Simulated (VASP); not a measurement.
# Transverse strain, stress and strain energy of SiC (F-43m) under uniaxial [111] stress at LDA level

Whether a SiC beam or resonator loaded along [111] can be designed with constant elastic moduli depends on how far its response stays linear. A Young's modulus fixes the stress at a given strain, and a Poisson ratio fixes the accompanying change of width; either may drift as the load grows. Here the crystal is strained by up to 2 % in compression and tension along [111], with the stress across the axis relaxed to zero. Strains and energies are measured from the crystal relaxed with LDA, and tension is positive. The calculation refers to a static, perfect lattice, so thermal softening and defects are absent. The results give the moduli at small strain and the error made by keeping them constant.

## Set-up

The start is a typed prototype cell. The crystal was relaxed with LDA. Strain is imposed along [111]; the strain across the axis is adjusted until the stress across it vanishes, and the atoms are relaxed with LDA. VASP 6.6.1, plane waves with PAW, cutoff 600 eV, no spin polarisation, no spin-orbit coupling, k mesh 12×12×12, static lattice.

Notes on method and selection:

- Runs that did not converge, have known faults or may not be shown are not listed, and runs on Ansatz's PAW sets soft_1 and soft_2 are kept to separate tables.

Columns:

- strain (%): strain along the axis (tension positive).
- gap (eV): band gap on the k mesh at LDA.
- transverse strain (%): strain across the axis.
- stress (GPa): stress along the axis, tension positive.
- strain energy (meV/atom): energy per atom above the relaxed crystal.

## Table of results

| member | strain (%) | gap (eV) | transverse strain (%) | stress (GPa) | strain energy (meV/atom) |
| --- | --- | --- | --- | --- | --- |
| −2 % | −2.0 | 1.105 | 0.212 | −11.48 | 7.42 |
| −1.5 % | −1.5 | 1.154 | 0.156 | −8.54 | 4.19 |
| −1 % | −1.0 | 1.203 | 0.102 | −5.66 | 1.89 |
| −0.5 % | −0.5 | 1.247 | ? | ? | ? |
| 0 % | 0.0 | 1.289 | 0.000 | −0.01 | 0.00 |
| +0.5 % | 0.5 | 1.273 | −0.046 | 2.74 | 0.39 |
| +1 % | 1.0 | 1.257 | −0.090 | 5.44 | 1.63 |
| +1.5 % | 1.5 | 1.239 | −0.133 | 8.09 | 3.72 |
| +2 % | 2.0 | 1.221 | −0.174 | 10.68 | 6.62 |

Cells marked ? are withheld until the estimate has been made.

Least-squares fits to the members shown, with x = strain (%); R² and errors in the fitted variable (y, or ln y where the fit is in ln y):

| y | members | fit | R² | rms residual | leave-one-out rms | the same for the mean of the others |
| --- | --- | --- | --- | --- | --- | --- |
| transverse strain (%) | 8 | y = 0.009414 − 0.09662 x | 1.00 | 0.0067 | 0.0096 | 0.15 |
| stress (GPa) | 8 | y = −0.1892 + 5.548 x | 1.00 | 0.14 | 0.21 | 8.6 |

## What drives the series

The crystal widens under compression and narrows under tension, but only by about a tenth of the axial strain. The members at ±1 % give a Poisson ratio of (0.102 + 0.090) / 2 = 0.096 and a Young's modulus along [111] of (5.66 + 5.44) / 2 = 5.55 GPa per %, or 5.55 × 100 = 555 GPa.

For a cubic crystal loaded along [111], two further moduli follow. The bulk modulus is B = E / [3(1 − 2ν)] = 555 / (3 × (1 − 2 × 0.096)) = 229 GPa, and the shear modulus is C₄₄ = E / [2(1 + ν)] = 555 / (2 × (1 + 0.096)) = 253 GPa. The latter includes the shift of the Si and C sublattices against each other, since the atoms were relaxed. The small Poisson ratio expresses a shear stiffness comparable with the bulk stiffness, as expected of directional covalent bonds that resist bending as well as stretching.

Linearity holds better for the stress than for the width. Stress divided by strain falls from 11.48 / 2 = 5.74 GPa per % at −2 % to 10.68 / 2 = 5.34 at +2 %, within about 4 % of the central value. The ratio of transverse to axial strain falls in magnitude from 0.212 / 2 = 0.106 to 0.174 / 2 = 0.087 over the same range, a departure of about 10 % on either side. The high R² of the straight-line fit hides this curvature.

The softening in tension is the usual anharmonicity of bonds, which resist shortening more than lengthening. The falling Poisson ratio would follow if the bulk modulus weakens faster than the shear modulus as the crystal expands, a likely cause that these columns do not test.

The strain energy is also higher in compression, 7.42 meV/atom at −2 % against 6.62 at +2 %, but anharmonicity is not the whole cause. A cubic term would make the difference between the two signs eight times as large at 2 % as at 1 %, whereas it grows only by a factor of (7.42 − 6.62) / (1.89 − 1.63) = 3.1. A term linear in strain must therefore contribute, probably because the finite plane-wave basis leaves the energy minimum slightly away from the point of zero stress. Averaged over both signs, which removes such a term, the energy is almost quadratic: doubling the strain from 1 % to 2 % multiplies it by (7.42 + 6.62) / (1.89 + 1.63) = 3.99.

## Predicting the missing value

Plain estimates from the members shown:

- −0.5 %, fit at x = −0.5: 0.058 %
- −0.5 %, straight-line interpolation between −1 % and 0 %: w = (−0.5 − (−1.0)) / (0.0 − (−1.0)) = 0.500, so 0.102 + 0.500 × (0.000 − 0.102) = 0.051 %

The straight-line fit is unsuitable for the member at −0.5 %, because it gives 0.009 % at zero strain, where the transverse strain is zero by definition. Interpolation between −1 % and 0 % respects that point and gives 0.051 %, but a chord lies above a curve that bends upwards, so a small downward correction is due.

The correction follows from the parabola t = −a x + b x², with t and x in %. The members at ±1 % give a = (0.102 + 0.090) / 2 = 0.096 and b = (0.102 − 0.090) / 2 = 0.006 per %. At x = −0.5 this yields 0.096 × 0.5 + 0.006 × 0.5 × 0.5 = 0.0495 %, which is 0.051 − 0.0495 = 0.0015 % below the chord.

The same parabola gives −0.096 × 0.5 + 0.006 × 0.5 × 0.5 = −0.0465 % at +0.5 %, against −0.046 % in the table. A harder trial uses the members at ±2 % to predict those at ±1 %: a = (0.212 + 0.174) / 4 = 0.0965 and b = (0.212 − 0.174) / 8 = 0.00475 give 0.0965 + 0.00475 = 0.1013 % and −0.0965 + 0.00475 = −0.0918 %, against 0.102 % and −0.090 %. The three misses have a root mean square of 0.0011 %, which is taken as the standard deviation. The estimate is therefore 0.050 ± 0.001 %, a slight widening under compression.

**Committed estimate, −0.5 %: transverse strain = 0.050 ± 0.001 %.**

## Outcome

| member | strain (%) | gap (eV) | transverse strain (%) | stress (GPa) | strain energy (meV/atom) |
| --- | --- | --- | --- | --- | --- |
| −0.5 % | −0.5 | 1.247 | 0.051 | −2.81 | 0.50 |

| member | estimate | transverse strain (%) | computed | estimate − computed | miss in error bars |
| --- | --- | --- | --- | --- | --- |
| −0.5 % | committed | 0.050 | 0.051 | −0.001 | 1.0 |
| −0.5 % | fit | 0.058 | 0.051 | +0.007 |  |
| −0.5 % | interpolation | 0.051 | 0.051 | 0.000 |  |

transverse strain (%) against strain (%):

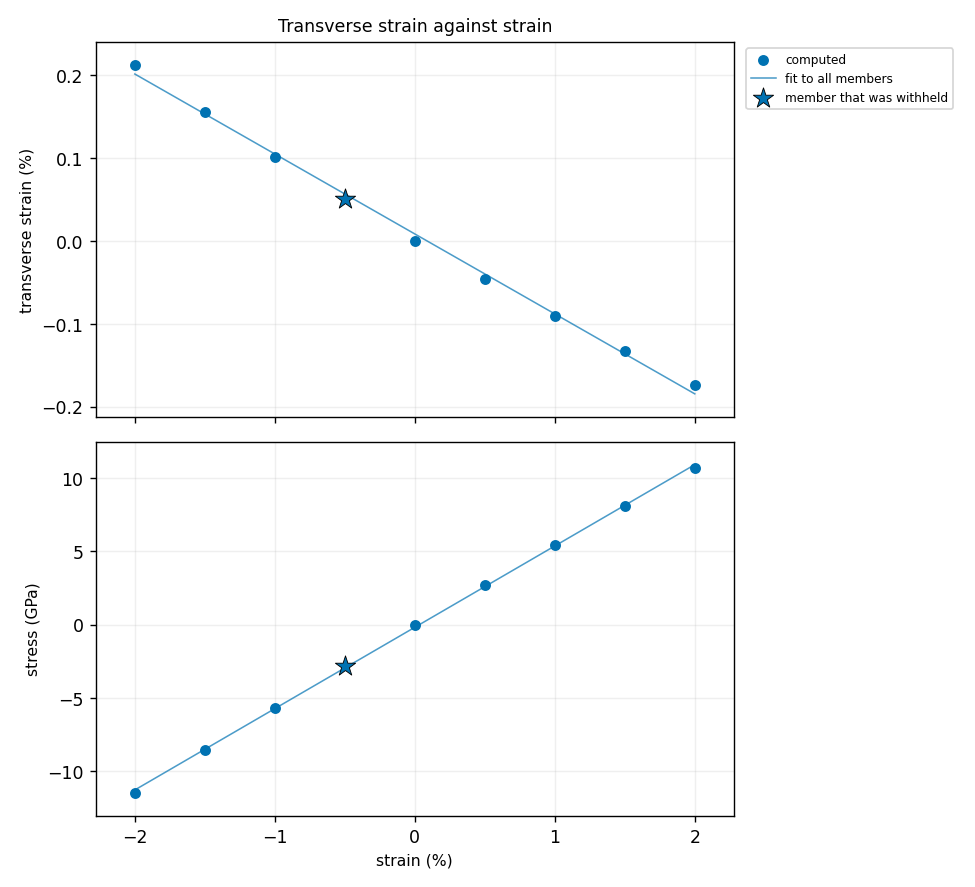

The computed 0.051 % lies at the edge of the error bar on the estimate of 0.050 ± 0.001 %. The estimate did better than the straight-line fit, which gave 0.058 %, but worse than the plain interpolation, which agrees to the printed digit. Rejecting the fit was right; the downward correction to the interpolation was not borne out.

The weak point was forcing the parabola through zero at zero strain. The half-sums of the transverse strains are (0.102 − 0.090) / 2 = 0.006 % at ±1 % and (0.212 − 0.174) / 2 = 0.019 % at ±2 %, which give a curvature of (0.019 − 0.006) / 3 = 0.0043 per % and leave an offset of 0.006 − 0.0043 = 0.0017 %. With this offset the value at −0.5 % becomes 0.0017 + 0.096 × 0.5 + 0.0043 × 0.5 × 0.5 = 0.051 %.

A likely source is the reference crystal, which keeps a stress of −0.01 GPa. Releasing it would expand the crystal by about 0.01 / (3 × 229) = 0.000015, or 0.0015 %, which has the right sign and size. The miss is therefore numerical in scale and leaves the anharmonic trend intact.

## Outliers

Least-squares fits to the whole series, with x = strain (%); R² and errors in the fitted variable (y, or ln y where the fit is in ln y):

| y | members | fit | R² | rms residual | leave-one-out rms | the same for the mean of the others |
| --- | --- | --- | --- | --- | --- | --- |
| transverse strain (%) | 9 | y = 0.008667 − 0.09640 x | 1.00 | 0.0066 | 0.0094 | 0.14 |
| stress (GPa) | 9 | y = −0.1722 + 5.543 x | 1.00 | 0.14 | 0.20 | 8.1 |

Largest departures from the fit to the whole series:

| member | transverse strain (%) | fit | computed − fit | in rms residuals |
| --- | --- | --- | --- | --- |
| −2 % | 0.212 | 0.201 | +0.011 | 1.6 |
| +2 % | −0.174 | −0.184 | +0.010 | 1.5 |
| 0 % | 0.000 | 0.009 | −0.009 | 1.3 |
| +0.5 % | −0.046 | −0.040 | −0.006 | 1.0 |

None stands out: the largest departure from the straight line is 1.6 rms residuals. The members at ±2 % lie above the line by 0.011 and 0.010 %, and those at 0 and +0.5 % lie below it by 0.009 and 0.006 %, as expected when a line is drawn through a curve that bends upwards.

## Conclusions and limits

Between −2 and +2 %, a constant Young's modulus of 555 GPa reproduces the stress to about 4 %, while a constant Poisson ratio of 0.096 reproduces the transverse strain only to about 10 %. Interpolation between adjacent members recovers each of the seven inner transverse strains to within 0.003 %.

For a [111] tension of 1 GPa, the axial strain is 1 / 5.55 = 0.18 % and the lateral contraction 0.18 × 0.096 = 0.017 %. A bar 100 µm wide thus narrows by about 17 nm.

Two omitted effects matter in use. Heating by several hundred kelvin widens the crystal by roughly 0.2 to 0.3 %, comparable with the largest transverse strain. Flaws make ordinary bulk SiC ceramics break at a few tenths of a GPa in tension, far below the 10.68 GPa that the perfect crystal carries at +2 %.
